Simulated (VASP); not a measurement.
# Relaxed cell volume of LaB₆ at seven levels of density-functional theory, with and without dispersion terms, against the diffraction cell

LaB₆ is a stiff boron network with lanthanum in its cages, not a crystal held together by dispersion, yet a dispersion correction can shrink its computed volume by about 2 %. The problem is to find how far each functional places the relaxed volume from the diffraction cell, and how much of that distance a dispersion term adds or removes. The answer matters because an error in volume passes into elastic constants, phonon frequencies and band widths. Seven levels are compared, each with cell and atoms relaxed on a static lattice. Errors are percentages of the diffraction volume, negative when the computed cell is too small. That reference contains thermal and zero-point expansion, so an exact static calculation should itself come out somewhat below zero.

## Method

The start is the cell of a diffraction database, 10.26 Å³ per atom, whose temperature is that of the entry, mostly ambient. VASP 6.6.1, plane waves with PAW, cutoff 520 eV; cell and atoms fully relaxed at zero pressure at each level, static lattice, no spin polarisation, no spin-orbit coupling. All ran on Intel(R) Xeon(R) Platinum 8488C (Sapphire Rapids), shared with other work, so times are rough. All levels use the PAW data sets made with PBE.

Notes on method and selection:

- The diffraction cell holds zero-point and thermal expansion, typically 0.5 to 2 % in volume at room temperature, which a static relaxation lacks.
- Crystals whose PBE volume lies more than 1.5 % under or 25 % over the diffraction cell, or whose cell differs by over 0.3 % from another measurement, were left out.
- Non-spherical gradient terms in the PAW spheres (LASPH) were on in all rows.
- Runs that did not converge, have known faults or may not be shown are not listed, and runs on Ansatz's PAW sets soft_1 and soft_2 are kept to separate tables.

Columns:

- volume error (%): relaxed volume relative to the diffraction cell.
- volume (Å³/atom): relaxed volume per atom.
- cost per step (core-s): processor time per ionic step of the relaxation.

Input lines of one member:

```
PREC = Accurate
ENCUT = 520
EDIFF = 1E-06
NELM = 100
ISMEAR = -1
SIGMA = 0.05
LREAL = .FALSE.
ALGO = Normal
GGA = CA
NBANDS = 21
LASPH = .TRUE.
LORBIT = 11
KPAR = 8
IBRION = 2
NSW = 60
```

Command (options for logging and memory left out): `mpirun -np 8 vasp_std`

## Computed values

| member | volume error (%) | volume (Å³/atom) | cost per step (core-s) |
| --- | --- | --- | --- |
| PBE | −0.222 | 10.239 | 42 |
| r2SCAN | −0.391 | 10.222 | 120 |
| r2SCAN + rVV10 | −0.680 | 10.193 | 240 |
| vdW-DF-cx | −0.814 | 10.179 | 190 |
| PBEsol | −1.900 | 10.067 | 38 |
| PBE + D3(BJ) | −2.428 | 10.013 | 44 |
| LDA | −3.824 | 9.870 | 24 |

volume error (%) by member:

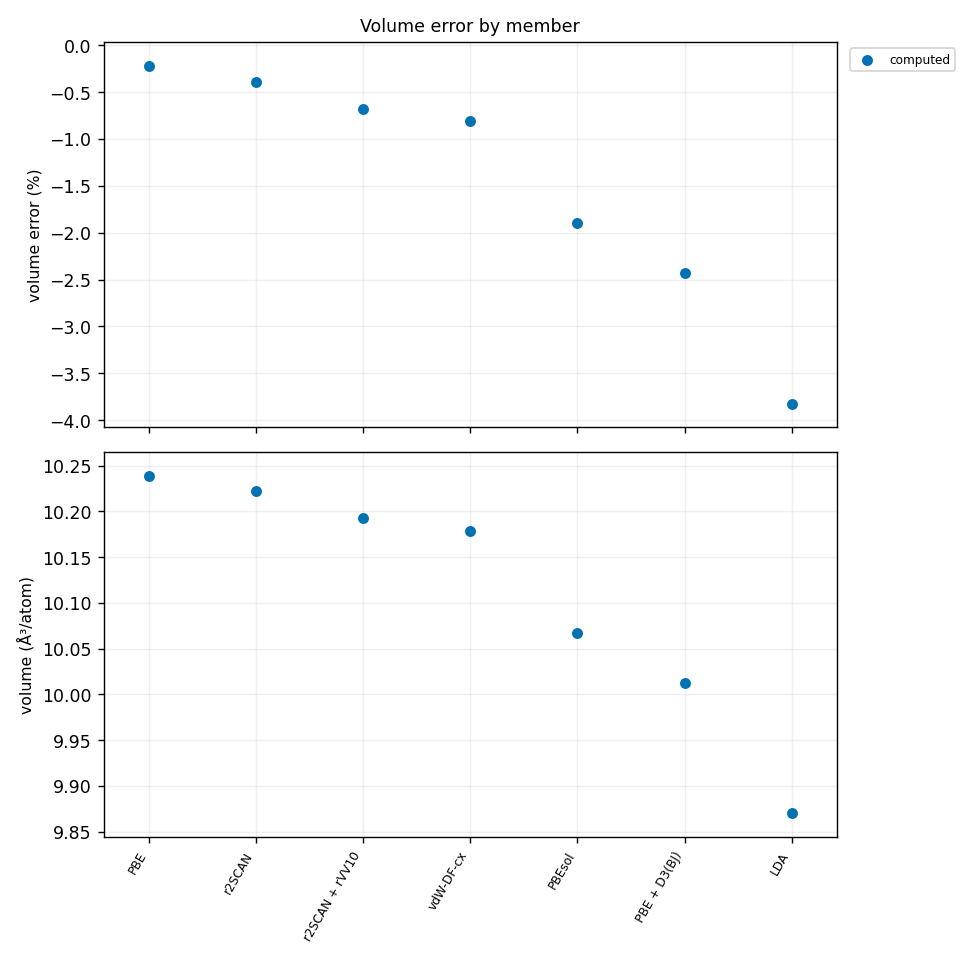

## Interpretation

All seven volumes lie below the diffraction cell, from −0.222 % with PBE, the nearest, to −3.824 % with LDA, the furthest. Adding D3(BJ) to PBE makes the error more negative by 2.428 − 0.222 = 2.206 percentage points. Adding rVV10 to r2SCAN does so by only 0.680 − 0.391 = 0.289 points.

A simple model starts from LDA and treats everything else as a small extra pressure. It rests on three assumptions.

First, near its minimum the LDA energy per atom is a parabola in the volume V per atom, E = E₀ + B(V − V_L)²/(2V_L), where V_L is the LDA volume and B the bulk modulus.

Second, a gradient correction adds an energy μG(V). Here μ is the coefficient with which exchange is enhanced at small density gradients. The gradient term of correlation, which acts the other way, is taken to scale with μ and is absorbed into G. Gradients favour an expanded, less uniform density, so G falls as V grows, with slope −g.

Third, a dispersion term adds an attraction W(V), which weakens on expansion and so has a positive slope w.

Setting the derivative of the total energy to zero gives

B(V − V_L)/V_L − μg + w = 0,

and therefore

V = V_L + cμ − d, with c = gV_L/B and d = wV_L/B.

The gradient correction expands the cell and dispersion contracts it, each in inverse proportion to the stiffness. The signs agree with the table: PBEsol and PBE lie above LDA in the order of their μ, and both added dispersion terms reduce the volume. V_L and c can be fixed on two rows without dispersion. The shift d belongs to one particular pairing of functional and dispersion term, and can only be read off as a difference.

## Testing the model

The model is fixed on LDA and PBE. Rounded values of μ are 0 for LDA, 0.22 for PBE, 0.12 for PBEsol and for r2SCAN in the limit of slowly varying density, and 0.09 for vdW-DF-cx. Volumes are in Å³ per atom, and d is set to zero throughout.

V_L = 9.870

c = (10.239 − 9.870) / 0.22 = 1.68

**PBEsol:** 9.870 + 1.68 × 0.12 = 10.072. The table gives 10.067, a difference of −0.005.

**r2SCAN:** the same μ gives 10.072. The table lies 10.222 − 10.072 = 0.150 above it.

**vdW-DF-cx:** 9.870 + 1.68 × 0.09 = 10.021. The table lies 10.179 − 10.021 = 0.158 above it.

**PBE + D3(BJ):** μ is that of PBE, so the model returns 10.239. The table lies 10.239 − 10.013 = 0.226 below it, which is the dispersion shift d.

For r2SCAN + rVV10 the model again gives 10.072, and the table lies 10.193 − 10.072 = 0.121 above it. The mean miss over the five rows not used in the fit is

(0.005 + 0.150 + 0.158 + 0.226 + 0.121) / 5 = 0.132.

The same five volumes scatter about their own mean by roughly 0.08 on average, so the model is no means of estimating the volume for an arbitrary functional. Even the close result for PBEsol is a mild test, since the midpoint of LDA and PBE would miss it by only about 0.01. What the model supplies is the direction of each contribution, not a ranking of functionals of different kinds: it puts vdW-DF-cx below PBEsol, and the table has them the other way round.

## Residuals

r2SCAN lies 0.150 Å³ per atom above the model. The second assumption is the likely weak point: r2SCAN also uses the kinetic-energy density to tell covalent, metallic and weak bonds apart, so a single gradient coefficient does not describe it.

vdW-DF-cx lies 0.158 above. It joins LDA correlation to a non-local term, and its exchange keeps rising at gradients where that of PBEsol levels off. The lack of a semilocal gradient term in correlation and the stronger exchange both act towards expansion, against the non-local attraction.

PBE + D3(BJ) lies 0.226 below because d was set to zero. A possible reason for the size of this shift is that D3 takes its coefficients from coordination and not from charge. Lanthanum has given electrons to the boron network, and a cation is less polarisable than the neutral atom, so the attraction may be too strong.

The shift from rVV10 is 10.222 − 10.193 = 0.029, about an eighth of that from D3(BJ). r2SCAN already contains part of the medium-range attraction, and rVV10 is damped to match. The contrast therefore belongs to the two pairings, not to the dispersion terms alone.

## Computational cost

D3(BJ) adds no cost that can be seen on shared processors: 44 core-seconds per ionic step against 42 for PBE. Its large change of volume is therefore almost free, but for this crystal it leads away from the diffraction cell.

r2SCAN takes 120 / 42 = 2.9 times as long per step as PBE and gives a volume only 0.017 Å³ per atom smaller. With rVV10 the step rises to 240 / 42 = 5.7 times that of PBE, for a further contraction smaller than the usual vibrational expansion. vdW-DF-cx, at 190, also ends within 1 % of the diffraction cell. For the volume of LaB₆ alone, the dearer levels bring no demonstrable gain over PBE or PBEsol.

## Summary

Both added dispersion terms move LaB₆ further below the diffraction cell, strongly for PBE and slightly for r2SCAN.

The main omission is vibrational expansion, typically 0.5 to 2 % in volume. It is smaller than the full spread of the table but comparable with or larger than the 0.814 − 0.222 = 0.592 points that cover the first four rows. Added to the computed volumes, it would make r2SCAN the nearest level at 0.5 % and PBEsol at 2 %, while LDA would remain the furthest, at 2 % only just. PBE's first place is thus not secure; at 2 % even PBE + D3(BJ) would lie nearer than PBE. It is also favoured by the selection, which left out crystals whose PBE volume falls more than 1.5 % short.

[Logs are printed without paths, hosts, clocks, repeated set-up lines and the standing remarks that a program may print on its own settings, such as how far it seeks lower states.]
